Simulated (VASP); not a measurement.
# Normal strain, in-plane stress and strain energy of Si (Fd-3m) under biaxial (111) strain of up to 2 % in LDA

The calculation gives the normal strain, in-plane stress and strain energy of silicon stretched or compressed equally along all directions of the (111) plane. Strains and energies are measured against the crystal relaxed with LDA, and tension counts as positive. The problem is to find how the three quantities depend on the imposed strain, which elastic moduli follow from them, and at what strain the linear law begins to fail. The answer matters for films grown on (111) substrates, where the lattice mismatch fixes the in-plane strain while the free surface lets the film relax along the normal. The modulus then sets the stress and the stored energy that can bend a wafer or drive the formation of dislocations.

## Method

The start is a typed prototype cell. The crystal was relaxed with LDA. Equal strain is imposed in the (111) plane; the strain along the normal starts from a guess proportional to the in-plane strain and is adjusted only where this guess leaves too large a normal stress, so that the normal stress is close to zero in all rows, and the atoms are relaxed with LDA. VASP 6.6.1, plane waves with PAW, cutoff 450 eV, no spin polarisation, no spin-orbit coupling, k mesh 10×10×10, static lattice.

Notes on method and selection:

- Runs that did not converge, have known faults or may not be shown are not listed, and runs on Ansatz's PAW sets soft_1 and soft_2 are kept to separate tables.

Columns:

- strain (%): strain in the plane (tension positive).
- gap (eV): band gap on the k mesh at LDA.
- normal strain (%): strain along the normal.
- stress (GPa): in-plane stress, tension positive.
- strain energy (meV/atom): energy per atom above the relaxed crystal.

Input lines of one member:

```
PREC = Accurate
ENCUT = 450
EDIFF = 1E-07
NELM = 120
ISMEAR = 0
SIGMA = 0.02
LREAL = .FALSE.
ALGO = Normal
GGA = CA
NBANDS = 10
LORBIT = 11
KPAR = 2
IBRION = 1
NSW = 25
ISIF = 2
```

Command (options for logging and memory left out): `mpirun -np 2 vasp_std`

## Results

| member | strain (%) | gap (eV) | normal strain (%) | stress (GPa) | strain energy (meV/atom) |
| --- | --- | --- | --- | --- | --- |
| −2 % | −2.0 | 0.251 | 0.975 | −4.73 | 11.39 |
| −1.5 % | −1.5 | 0.320 | 0.723 | −3.50 | 6.37 |
| −1 % | −1.0 | 0.370 | 0.474 | −2.30 | 2.82 |
| −0.5 % | −0.5 | 0.415 | 0.235 | −1.14 | 0.71 |
| 0 % | 0.0 | 0.453 | 0.000 | 0.00 | 0.00 |
| +0.5 % | 0.5 | 0.420 | −0.225 | 1.10 | 0.66 |
| +1 % | 1.0 | 0.387 | ? | ? | ? |
| +1.5 % | 1.5 | 0.353 | −0.675 | 3.18 | 5.96 |
| +2 % | 2.0 | 0.321 | −0.880 | 4.17 | 10.52 |

Cells marked ? are withheld until the estimate has been made.

Least-squares fits to the members shown, with x = strain (%); R² and errors in the fitted variable (y, or ln y where the fit is in ln y):

| y | members | fit | R² | rms residual | leave-one-out rms | the same for the mean of the others |
| --- | --- | --- | --- | --- | --- | --- |
| normal strain (%) | 8 | y = 0.02042 − 0.4636 x | 1.00 | 0.018 | 0.027 | 0.70 |
| stress (GPa) | 8 | y = −0.1247 + 2.223 x | 1.00 | 0.11 | 0.16 | 3.3 |

## The trend and its physics

In-plane tension thins the crystal along the normal and compression thickens it. To first order the normal strain and the stress are proportional to the in-plane strain, and the energy to its square.

The slopes are best taken from the rows at −2 % and +2 %, because the leading curvature cancels between them. The normal strain changes by −(0.975 + 0.880) / 4.0 = −0.464 per unit of in-plane strain. The stress changes by (4.17 + 4.73) / 4.0 = 2.225 GPa per %, a biaxial modulus of Y = 2.225 × 100 = 222.5 GPa.

With zero normal stress and r = 0.464, cubic elasticity gives two moduli. The volume change yields the bulk modulus, B = 2Y / [3(2 − r)] = 2 × 222.5 / (3 × (2 − 0.464)) = 96.6 GPa. The change of shape yields the shear modulus, C₄₄ = Y / [2(1 + r)] = 222.5 / (2 × (1 + 0.464)) = 76.0 GPa. This C₄₄ includes the shift of the two atoms against each other along the normal, which softens the crystal. C₁₁ and C₁₂ do not follow separately, since this strain involves them only as C₁₁ + 2C₁₂ = 3B.

Departures from linearity have the sign expected of anharmonic bonds, which stiffen when shortened and soften when stretched. Stress divided by strain is 1.14 / 0.5 = 2.28 GPa per % at −0.5 % and 1.10 / 0.5 = 2.20 at +0.5 %, within about 2 % of their mean. At −2 % and +2 % it is 4.73 / 2.0 = 2.365 and 4.17 / 2.0 = 2.085, about 6 % either side of the mean. The energies at these two strains, 11.39 and 10.52 meV/atom, lie only 4 % from their mean. That is consistent with a cubic energy term, whose relative weight in the energy is two thirds of that in the stress. Linear elasticity therefore serves to a few per cent up to about 1 % strain, and beyond that the sign of the strain matters.

## Estimating the withheld member

Plain estimates from the members shown:

- +1 %, fit at x = 1.0: −0.443 %
- +1 %, straight-line interpolation between +0.5 % and +1.5 %: w = (1.0 − 0.5) / (1.5 − 0.5) = 0.500, so −0.225 + 0.500 × (−0.675 − (−0.225)) = −0.450 %

The straight-line interpolation deserves more trust than the fit over all members. The fit has an intercept of 0.020 %, although the normal strain is zero by definition in the unstrained crystal; the intercept comes from forcing a line through slightly curved data.

There is also a reason in the procedure. The first guess for the normal strain is proportional to the in-plane strain and is kept wherever it leaves a small enough normal stress. The row at +0.5 % gives the factor −0.225 / 0.5 = −0.450. Tried on +1.5 %, it gives −0.450 × 1.5 = −0.675 %, the tabulated value. Both rows therefore appear to hold the guess. If it sufficed at +1.5 %, it should also suffice at +1 %, where the normal stress it leaves is expected to be smaller. For +1 % it gives −0.450 × 1.0 = −0.450 %.

The adjusted rows show that this guess is also physically reasonable. Their ratio of normal to in-plane strain is −0.235 / 0.5 = −0.470 at −0.5 % and −0.880 / 2.0 = −0.440 at +2 %. The weight for +1 % is (1.0 + 0.5) / (2.0 + 0.5) = 0.600, and the interpolated ratio is −0.470 + 0.600 × 0.030 = −0.452, so a fully relaxed normal strain would lie near −0.452 %. No shift is applied for this, because the row should hold the guess.

The error bar covers the rounding of the row at +0.5 %, at most 0.0005 / 0.5 × 1.0 = 0.001 %. It describes the tabulated entry; as a value for exactly zero normal stress, −0.450 % is uncertain by a few thousandths of a per cent.

**Committed estimate, +1 %: normal strain = −0.450 ± 0.001 %.**

## The withheld result

| member | strain (%) | gap (eV) | normal strain (%) | stress (GPa) | strain energy (meV/atom) |
| --- | --- | --- | --- | --- | --- |
| +1 % | 1.0 | 0.387 | −0.450 | 2.16 | 2.66 |

| member | estimate | normal strain (%) | computed | estimate − computed | miss in error bars |
| --- | --- | --- | --- | --- | --- |
| +1 % | committed | −0.450 | −0.450 | 0.000 | 0.0 |
| +1 % | fit | −0.443 | −0.450 | +0.007 |  |
| +1 % | interpolation | −0.450 | −0.450 | 0.000 |  |

normal strain (%) against strain (%):

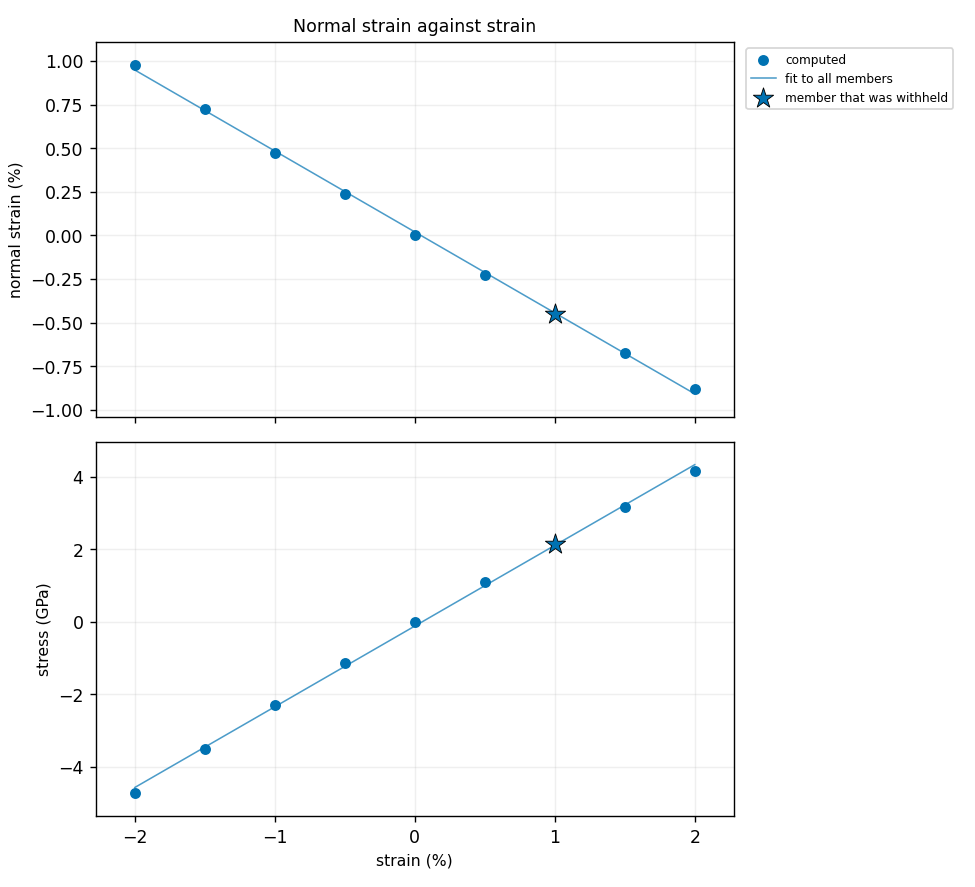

The estimate of −0.450 % equals the tabulated value and lies inside its error bar. The interpolation did equally well, and the fit over all members missed by 0.007 %. The agreement confirms only how the row was set up: its normal strain is the first guess, kept because the normal stress was already small.

The stress is a real test of the elastic law. The linear modulus gives 2.225 × 1.0 = 2.225 GPa at +1 %, and the calculation gives 2.16 GPa, 3 % less. This is the softening under tension expected of anharmonic bonds.

The explanation given above for the energies was incomplete. A cubic term alone would make their relative asymmetry grow in proportion to the strain. Instead, the difference between the energies under compression and tension, divided by their sum, is (0.71 − 0.66) / (0.71 + 0.66) = 0.036 at 0.5 % strain, (2.82 − 2.66) / (2.82 + 2.66) = 0.029 at 1 % and (11.39 − 10.52) / (11.39 + 10.52) = 0.040 at 2 %. Part of the asymmetry is therefore linear in strain, which means that the energy minimum lies at a slightly larger cell than the one relaxed to zero stress. The likely cause is the finite plane-wave cutoff (Pulay stress), which has this sign.

## Where the trend breaks

Least-squares fits to the whole series, with x = strain (%); R² and errors in the fitted variable (y, or ln y where the fit is in ln y):

| y | members | fit | R² | rms residual | leave-one-out rms | the same for the mean of the others |
| --- | --- | --- | --- | --- | --- | --- |
| normal strain (%) | 9 | y = 0.01967 − 0.4641 x | 1.00 | 0.017 | 0.024 | 0.67 |
| stress (GPa) | 9 | y = −0.1178 + 2.227 x | 1.00 | 0.10 | 0.15 | 3.2 |

Largest departures from the fit to the whole series:

| member | normal strain (%) | fit | computed − fit | in rms residuals |
| --- | --- | --- | --- | --- |
| +2 % | −0.880 | −0.909 | +0.029 | 1.7 |
| −2 % | 0.975 | 0.948 | +0.027 | 1.6 |
| 0 % | 0.000 | 0.020 | −0.020 | 1.2 |
| −0.5 % | 0.235 | 0.252 | −0.017 | 1.0 |

No single member stands out; the departures form the pattern of a curve fitted by a straight line. The rows at +2 % and −2 % lie above the line by 0.029 % and 0.027 %, while those at 0 % and −0.5 % lie below it by 0.020 % and 0.017 %. The departure at 0 % is simply the intercept of the fit, since the normal strain there is zero by definition.

The curvature itself is real, because the normal strain was adjusted in both end rows. Its contribution at 2 % strain is (0.975 − 0.880) / 2 = 0.048 %. Some of this is geometry: if the logarithmic strains kept a constant ratio r = 0.464, the ordinary normal strain would still curve upwards by r(1 + r)/2 times the square of the in-plane strain, or 0.464 × (1 + 0.464) / 2 × 0.02² = 0.00014, which is 0.014 %. The larger remainder has to come from the nonlinear elastic response of the crystal.

## What to take away

Between −2 % and +2 %, the stress in GPa follows 2.225 x − 0.070 x², with x the in-plane strain in %. The two coefficients come from the end rows alone, the second as (4.73 − 4.17) / (2 × 2.0²) = 0.070, and the formula reproduces the other six strained rows to about 0.01 GPa, against an rms residual of 0.10 GPa for the straight-line fit. A further strain inside this range can be estimated equally well.

For a film 100 nm thick at +1 %, the force per unit width is stress times thickness, 2.16 × 100 = 216 N/m (GPa times nm gives N/m), the quantity that bends a wafer.

Of the omitted physics, dislocations matter most: in a film above its critical thickness they can remove most of the stress. Thermal softening of the moduli, also left out by the static lattice, is a much smaller correction at room temperature.

[Logs are printed without paths, hosts, clocks, repeated set-up lines and the standing remarks that a program may print on its own settings, such as how far it seeks lower states.]
